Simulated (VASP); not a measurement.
# Conduction levels of NaI (Fm-3m) at Γ, X and L from LDA to hybrid functionals

We calculate the lowest empty levels of rocksalt NaI at Γ, X and L with a series of functionals, in one fixed cell, and measure each from the top of the valence band. The question is whether a change of functional lifts the three levels together or alters their order. This matters for models of scintillators and other wide-gap materials: the gap sets the energy needed to create an electron-hole pair, while the spacing of the valleys decides where hot electrons can scatter as they cool. If the levels move together, a cheap functional can supply the spacing even though its gap is too small. The comparison concerns levels at the symmetry points; a valley minimum may lie beside such a point and somewhat lower.

## Computational details

A cell from a diffraction database, the same for all rows. VASP 6.6.1, plane waves with PAW, cutoff 350 eV, no spin polarisation, no spin-orbit coupling. Levels are read at the symmetry points of a band path, from the valence-band top. EpsX marks an unscreened share α = 1/ε∞ of exact exchange. The PAW data sets differ between levels: LDA sets for LDA; PBE sets for HSE06, PBE, PBE0, TB-mBJ, r2SCAN and r2SCAN-EpsX.

Notes on method and selection:

- A valley minimum can lie off the symmetry point and below the level at it.
- Spin-orbit coupling is left out; it raises the valence-band top and so lowers all three levels by about the same amount.
- Runs that did not converge, have known faults or may not be shown are not listed, and runs on Ansatz's PAW sets soft_1 and soft_2 are kept to separate tables.

Columns:

- Γ valley (eV): lowest empty level at Γ.
- k mesh: k mesh of the density and of exact exchange.
- X valley (eV): lowest empty level at X.
- L valley (eV): lowest empty level at L.
- X − Γ (eV): level at X less level at Γ.

Input lines of one member:

```
PREC = Accurate
ENCUT = 350
EDIFF = 1E-06
NELM = 100
ISMEAR = 0
SIGMA = 0.03
LREAL = .FALSE.
ALGO = Normal
GGA = CA
NBANDS = 19
LORBIT = 11
KPAR = 4
LASPH = .TRUE.
```

Command (options for logging and memory left out): `mpirun -np 4 vasp_std`

## Table of results

```
member                  Γ valley (eV)  k mesh  X valley (eV)  L valley (eV)  X − Γ (eV)
LDA                     3.34           6×6×6   4.26           4.86           0.918
PBE                     3.64           6×6×6   4.49           5.09           0.853
r2SCAN                  4.44           6×6×6   5.23           5.69           0.789
HSE06                   4.67           4×4×4   5.55           6.09           0.877
PBE0                    5.34           4×4×4   6.24           6.76           0.904
TB-mBJ                  5.57           6×6×6   ?              ?              ?
r2SCAN-EpsX (α = 0.29)  6.02           4×4×4   6.92           7.33           0.906
```

Cells marked ? are withheld until the estimate has been made.

Least-squares fits to the members shown, with x = Γ valley (eV); R² and errors in the fitted variable (y, or ln y where the fit is in ln y):

```
y              members  fit                   R²    rms residual  leave-one-out rms  the same for the mean of the others
X valley (eV)  6        y = 0.8419 + 1.007 x  1.00  0.043         0.063              1.1
L valley (eV)  6        y = 1.653 + 0.9436 x  0.99  0.073         0.096              1.0
```

## What drives the series

The order is Γ, then X, then L in all six complete rows. From LDA to r2SCAN-EpsX the level at Γ rises by 6.02 − 3.34 = 2.68 eV, that at X by 6.92 − 4.26 = 2.66 eV and that at L by 7.33 − 4.86 = 2.47 eV. The spacing X − Γ stays between 0.789 and 0.918 eV, a range of 0.129 eV, so the choice of functional matters far more for the gap than for this spacing.

The common rise has a known origin. Semilocal functionals leave the filled iodine p states too high, because an electron in them still partly repels itself, and their potential lacks the jump that separates filled from empty states. Exact exchange lowers the filled states relative to the empty ones, and its long-range part does so almost equally for every empty level. The step from HSE06 to PBE0, which restores that long-range part, shows this: the rises are 5.34 − 4.67 = 0.67 eV at Γ, 6.24 − 5.55 = 0.69 eV at X and 6.76 − 6.09 = 0.67 eV at L.

The smaller changes in spacing depend on the kind of functional. From PBE to r2SCAN, Γ rises by 4.44 − 3.64 = 0.80 eV, X by 5.23 − 4.49 = 0.74 eV and L by 5.69 − 5.09 = 0.60 eV, so the valleys draw closer. Adding exact exchange moves X away from Γ again: X − Γ grows by 0.904 − 0.853 = 0.051 eV from PBE to PBE0, and by 0.906 − 0.789 = 0.117 eV from r2SCAN to r2SCAN-EpsX. A possible reason is orbital character, since cubic symmetry keeps s and d states of one site apart at Γ but lets them mix at X.

The hybrids use a coarser k mesh than the other rows. The resulting error in long-range exchange should shift all three levels nearly alike and largely cancel in their spacing.

## A prediction

Plain estimates from the members shown:

- TB-mBJ, fit at x = 5.57: 6.45 eV
- TB-mBJ, straight-line interpolation between PBE0 and r2SCAN-EpsX (α = 0.29): w = (5.57 − 5.34) / (6.02 − 5.34) = 0.338, so 6.24 + 0.338 × (6.92 − 6.24) = 6.47 eV

The fit and the interpolation put the X level of TB-mBJ at 6.45 and 6.47 eV. Both lean on the hybrids at this gap, and exact exchange widens X − Γ in all three hybrids relative to their semilocal parents. TB-mBJ contains no exact exchange. It opens the gap with a local potential that depends on the kinetic-energy density and is raised where the electron density is low. This should lift the spread-out, s-like state at Γ somewhat more than a state at X with d character, and so reduce the spacing.

We therefore extend the line from PBE to r2SCAN, the other functional here that uses the kinetic-energy density without exact exchange. Its slope is (5.23 − 4.49) / (4.44 − 3.64) = 0.925, which gives 5.23 + 0.925 × (5.57 − 4.44) = 6.28 eV. The implied X − Γ is 0.71 eV, below every spacing shown.

The same kind of extension can be tried on r2SCAN. The slope from LDA to PBE is (4.49 − 4.26) / (3.64 − 3.34) = 0.767, and 4.49 + 0.767 × (4.44 − 3.64) = 5.10 eV, which is 0.13 eV below the calculated 5.23 eV. We take this miss as the standard deviation. It rests on a single trial, and r2SCAN and TB-mBJ use the kinetic-energy density in different ways.

**Committed estimate, TB-mBJ: X valley = 6.28 ± 0.13 eV.**

## The answer

```
member  Γ valley (eV)  k mesh  X valley (eV)  L valley (eV)  X − Γ (eV)
TB-mBJ  5.57           6×6×6   6.21           6.53           0.646
```

```
member  estimate       X valley (eV)  computed  estimate − computed  miss in error bars
TB-mBJ  committed      6.28           6.21      +0.07                0.5
TB-mBJ  fit            6.45           6.21      +0.24
TB-mBJ  interpolation  6.47           6.21      +0.26
```

X valley (eV) against Γ valley (eV):

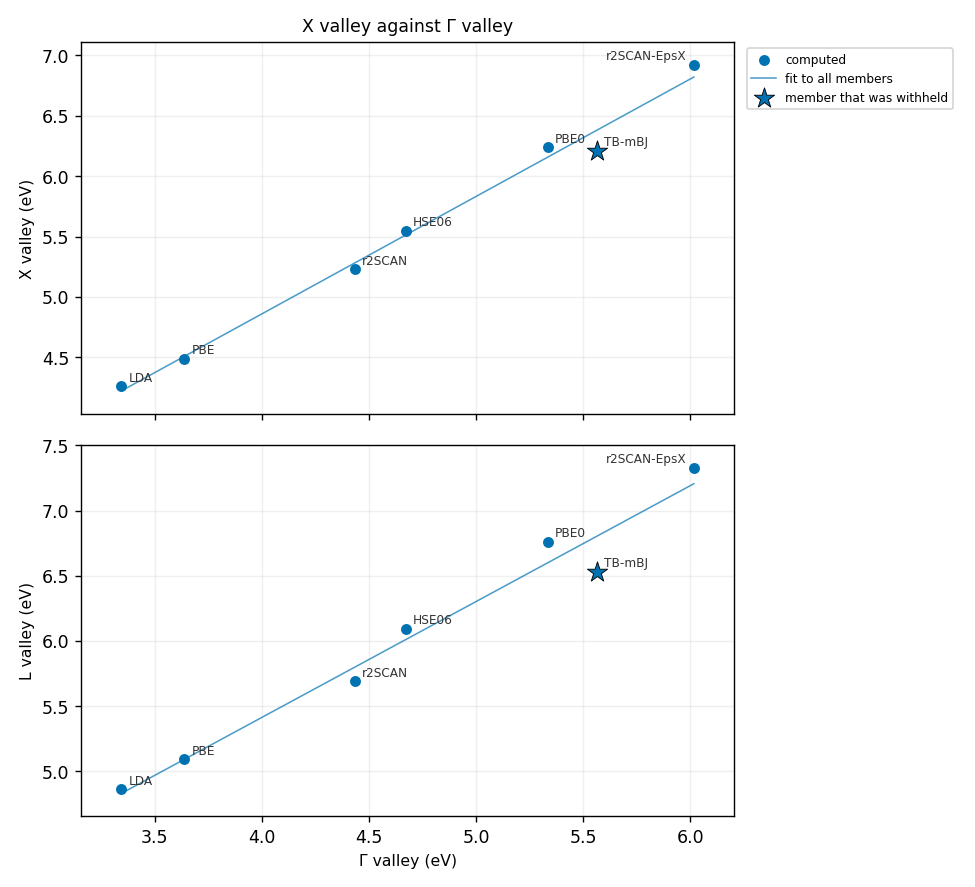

The computed X level of TB-mBJ is 6.21 eV. Our 6.28 ± 0.13 eV is 0.07 eV too high, inside the error bar, and closer than the fit (0.24 eV too high) and the interpolation (0.26 eV too high).

The argument that held is that TB-mBJ, which opens the gap without exact exchange, should have a smaller X − Γ than the hybrids. It has the smallest of the series, 0.646 eV. The line from PBE through r2SCAN gave the right direction but too little narrowing: from r2SCAN to TB-mBJ the X level rises by (6.21 − 5.23) / (5.57 − 4.44) = 0.87 eV per eV at Γ, against the 0.925 we assumed.

The result fits a potential that lifts the spread-out state at Γ more than the state at X. That the X state owes this to d character remains a conjecture, since the table has no column for orbital character.

## Exceptions

Least-squares fits to the whole series, with x = Γ valley (eV); R² and errors in the fitted variable (y, or ln y where the fit is in ln y):

```
y              members  fit                    R²    rms residual  leave-one-out rms  the same for the mean of the others
X valley (eV)  7        y = 0.9701 + 0.9724 x  0.99  0.087         0.12               1.1
L valley (eV)  7        y = 1.855 + 0.8893 x   0.97  0.14          0.19               0.97
```

Largest departures from the fit to the whole series:

```
member                  X valley (eV)  fit   computed − fit  in rms residuals
TB-mBJ                  6.21           6.39  −0.18           2.0
r2SCAN-EpsX (α = 0.29)  6.92           6.82  +0.10           1.1
PBE0                    6.24           6.16  +0.08           0.9
r2SCAN                  5.23           5.29  −0.06           0.7
```

TB-mBJ stands out, 0.18 eV below the fit to the whole series. Against the earlier fit to the other six members it lies 0.24 eV low at X, and at L the shortfall is larger: 1.653 + 0.9436 × 5.57 = 6.91 eV, against 6.53 eV computed. The likeliest reason is the form of its potential, which does not raise the empty states equally, whereas long-range exact exchange nearly does.

The positive departures of r2SCAN-EpsX and PBE0 arise mostly because TB-mBJ pulls the line down at large gaps. On the six-member fit both lie within about 0.02 eV of the line.

r2SCAN is low on either fit, by 0.06 to 0.08 eV. This is a small effect with the same sign as that of TB-mBJ, and r2SCAN too depends on the kinetic-energy density and contains no exact exchange.

## Closing remarks

The order Γ, X, L holds for all seven functionals, but the levels do not move rigidly: X − Γ runs from 0.646 to 0.918 eV, and L − Γ from 6.53 − 5.57 = 0.96 eV (TB-mBJ) to 4.86 − 3.34 = 1.52 eV (LDA).

For the X level, adding the PBE spacing of 0.853 eV to another functional's Γ level works to within 0.07 eV for five of the other six members. For TB-mBJ it gives 0.21 eV too much. The rms miss over the six is 0.10 eV, against 1.1 eV for the mean of the others.

Even the smallest X − Γ is 0.646 / 0.026 = 25 times the thermal energy at room temperature, so electrons in equilibrium have almost no weight at X; the spacing matters for hot electrons.

Spin-orbit coupling, which these runs leave out, would lower all three levels, probably by a few tenths of an eV. That is small beside the 2.66 eV spread of the X level, and it nearly cancels in the spacings.

[Logs are printed without paths, hosts, clocks, repeated set-up lines and the standing remarks that a program may print on its own settings, such as how far it seeks lower states.]
